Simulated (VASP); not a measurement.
# Uniaxial [001] loading of fcc rhodium at PBEsol: Young's modulus, Poisson ratio and the limits of linearity up to 2 % strain

Rhodium serves as a hard contact coating and as a layer in thin-film stacks, where a strain imposed by a substrate or a clamp has to be turned into a stress. That conversion needs elastic moduli for the loaded direction and a strain up to which they may be used. We calculate the response of fcc rhodium to strain along [001] between −2 % and +2 %, with the sides free to adjust until the stress across the axis vanishes. Strains and energies are measured against the crystal relaxed with the same functional, PBEsol, and tension is positive. The primitive cell holds one atom, on which symmetry allows no force, so the response comes entirely from the change in the shape and volume of the cell.

## Computational details

The start is an entry of the ASE's table of reference states database. The crystal was relaxed with PBEsol. Strain is imposed along [001]; the strain across the axis is adjusted until the stress across it vanishes, and the atoms are relaxed with PBEsol. VASP 6.6.1, plane waves with PAW, cutoff 450 eV, no spin polarisation, no spin-orbit coupling, k mesh 27×27×27, static lattice. The same in all rows: band gap on the k mesh at PBEsol: 0.000 eV.

Notes on method and selection:

- Runs that did not converge, have known faults or may not be shown are not listed, and runs on Ansatz's PAW sets soft_1 and soft_2 are kept to separate tables.

Columns:

- strain (%): strain along the axis (tension positive).
- transverse strain (%): strain across the axis.
- stress (GPa): stress along the axis, tension positive.
- strain energy (meV/atom): energy per atom above the relaxed crystal.

## The series

| member | strain (%) | transverse strain (%) | stress (GPa) | strain energy (meV/atom) |
| --- | --- | --- | --- | --- |
| −2 % | −2.0 | 0.643 | −7.07 | 6.131 |
| −1.5 % | −1.5 | 0.476 | −5.30 | 3.459 |
| −1 % | −1.0 | 0.315 | −3.52 | 1.570 |
| −0.5 % | −0.5 | 0.156 | −1.75 | 0.4169 |
| 0 % | 0.0 | 0.002 | −0.01 | 0.00404 |
| +0.5 % | 0.5 | −0.148 | 1.72 | 0.3320 |
| +1 % | 1.0 | −0.295 | 3.44 | 1.372 |
| +1.5 % | 1.5 | −0.437 | 5.13 | 3.120 |
| +2 % | 2.0 | −0.576 | 6.79 | 5.562 |

transverse strain (%) against strain (%):

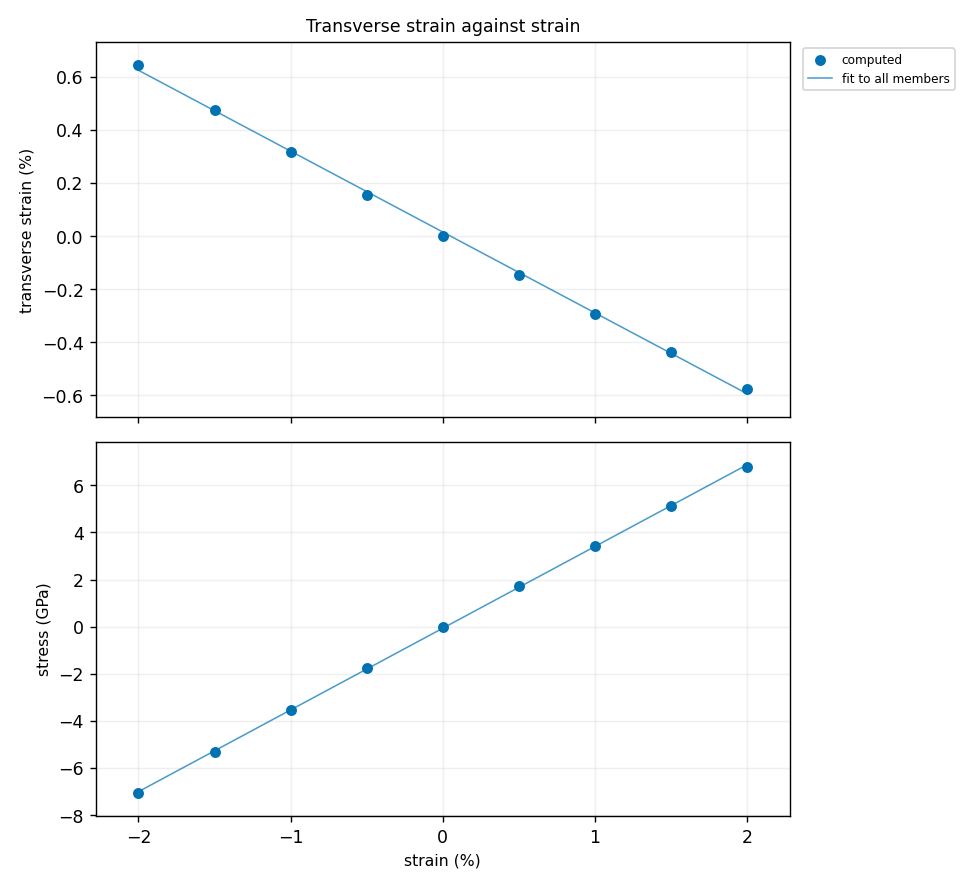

Least-squares fits to the whole series, with x = strain (%); R² and errors in the fitted variable (y, or ln y where the fit is in ln y):

| y | members | fit | R² | rms residual | leave-one-out rms | the same for the mean of the others |
| --- | --- | --- | --- | --- | --- | --- |
| transverse strain (%) | 9 | y = 0.01511 − 0.3046 x | 1.00 | 0.011 | 0.016 | 0.44 |
| stress (GPa) | 9 | y = −0.06333 + 3.471 x | 1.00 | 0.049 | 0.070 | 5.0 |

## What drives the series

The stress rises by 3.471 GPa per % of strain, which gives a Young's modulus along [001] of $E$ = 3.471 × 100 = 347.1 GPa. The transverse strain falls by 0.3046 % per %, so the Poisson ratio is $\nu$ = 0.305. For a cubic crystal loaded along a cube axis these two numbers fix three further moduli:

- Bulk modulus, $B = E/[3(1-2\nu)]$: 347.1 / (3 × (1 − 2 × 0.3046)) = 296 GPa.
- $C_{11}-C_{12} = E/(1+\nu)$: 347.1 / (1 + 0.3046) = 266 GPa.
- With $C_{12}/C_{11} = \nu/(1-\nu)$ = 0.3046 / (1 − 0.3046) = 0.438, $C_{11}$ = 266 / (1 − 0.438) = 473 GPa and $C_{12}$ = 473 − 266 = 207 GPa.

The geometry of the twelve nearest-neighbour bonds shows what is being deformed. At +2 % the eight bonds inclined to the axis lengthen by about (2.0 − 0.576) / 2 = 0.71 %, while the four bonds in the (001) plane shorten by 0.576 %. The sides contract until the pull of the stretched bonds is balanced by the resistance of the shortened ones. The volume is not conserved: it grows by about 2.0 − 2 × 0.576 = 0.85 %.

The stiffness is not quite constant. Between +1.5 % and +2 % the stress rises by (6.79 − 5.13) / 0.5 = 3.32 GPa per %, and between −2 % and −1.5 % by (7.07 − 5.30) / 0.5 = 3.54 GPa per %. This is the usual sign of anharmonicity: repulsion between atoms steepens as they approach, and bonding weakens as they separate.

The strain energy per atom should follow $\tfrac{1}{2}E\varepsilon^2V$, with $\varepsilon$ the axial strain and $V$ the volume per atom. Averaged over tension and compression it is (1.570 + 1.372) / 2 = 1.471 meV/atom at 1 % and (6.131 + 5.562) / 2 = 5.847 meV/atom at 2 %. The ratio is 5.847 / 1.471 = 3.97, where a purely quadratic law gives 4.

## Outliers

Largest departures from the fit to the whole series:

| member | transverse strain (%) | fit | computed − fit | in rms residuals |
| --- | --- | --- | --- | --- |
| −2 % | 0.643 | 0.624 | +0.019 | 1.6 |
| +2 % | −0.576 | −0.594 | +0.018 | 1.6 |
| 0 % | 0.002 | 0.015 | −0.013 | 1.1 |
| −0.5 % | 0.156 | 0.167 | −0.011 | 1.0 |

The largest departures of the transverse strain from its straight line are those of the two end rows, +0.019 % at −2 % and +0.018 % at +2 %, while the rows at 0 % and −0.5 % lie below the line. This is the pattern of a smooth curvature: the sides expand by 0.643 % under compression but contract by only 0.576 % under equal tension. A plausible reason is that in tension the in-plane bonds are already shortened and resist further contraction. The curvature also produces most of the fitted intercepts, which are therefore not a residual strain or stress.

The energies contain a different irregularity. The ratio of compressive to tensile energy is 0.4169 / 0.3320 = 1.26 at 0.5 % but 6.131 / 5.562 = 1.10 at 2 %. Anharmonicity would make this ratio grow with strain, so a small term linear in strain must be present. From the pair at 0.5 % it is about (0.4169 − 0.3320) / (2 × 0.5) = 0.085 meV/atom per %. Since 1.471 meV/atom at 1 % corresponds to half of 3.471 GPa times that strain, this is a stress of 0.085 × 3.471 / (2 × 1.471) = 0.10 GPa, whereas the stress printed at 0 % is −0.01 GPa. A plausible cause is the finite plane-wave basis: at fixed cutoff a larger cell holds more plane waves, which lowers the energies in tension, and the calculated stress does not include this effect.

## Short exercises

**Which strain along [001] produces a tensile stress of 2.5 GPa?**
The target lies between the rows at +0.5 % (1.72 GPa) and +1 % (3.44 GPa). Interpolation gives 0.5 + 0.5 × (2.5 − 1.72) / (3.44 − 1.72) = 0.73 %. The target lies (2.5 − 1.72) / (3.44 − 1.72) = 0.45 of the way between the two rows, so the sides contract by about 0.148 + 0.45 × (0.295 − 0.148) = 0.21 %.

**What stress does a (001) film carry if it is stretched by 0.5 % along both in-plane cube axes?**
The uniaxial row does not apply directly, because each in-plane stress opposes the extension caused by the other. For a cubic film with a free surface the biaxial modulus is $E/(1-\nu)$, which is 347.1 / (1 − 0.3046) = 499 GPa. The stress is 499 × 0.005 = 2.5 GPa, against 1.72 GPa for uniaxial loading at the same strain. Using the uniaxial value would understate the film stress by about 30 %.

**Can the modulus be taken from one strained calculation at +0.5 %?**
From the stress, yes: 1.72 / 0.5 = 3.44 GPa per %, which is 1 % below the fitted 3.471. From the energy, no. The single row gives 0.3320 / (0.5 × 0.5) = 1.33 meV/atom per %², while the pair at ±2 % gives 5.847 / 4 = 1.46, so the modulus would come out 9 % too low. Averaging the energies at +0.5 % and −0.5 % removes the linear term and gives (0.3320 + 0.4169) / (2 × 0.5 × 0.5) = 1.50, within 3 % of the value from the wider pair.

## Rules of thumb and their limits

Between −2 % and +2 %, stress taken as 3.471 GPa per % reproduces the strained rows to within about 2 %. The transverse strain is less linear: a constant Poisson ratio of 0.305 misses by up to 6 % at the ends.

These moduli describe a perfect crystal without thermal motion. Zero-point motion and thermal expansion would lower them, and PBEsol tends to make the bonds of late 4d metals slightly short and therefore too stiff, so both effects place the calculated values on the high side. Measured moduli are not compared here.

Loading along [001] gives no access to the shear modulus $C_{44}$. Rhodium, like most fcc metals, is known to be softest along [001], so a polycrystalline coating with randomly oriented grains should be stiffer than the [001] value at the same level of theory. Ordinary bulk metal also yields by dislocation motion well before the stresses of several GPa reached here.
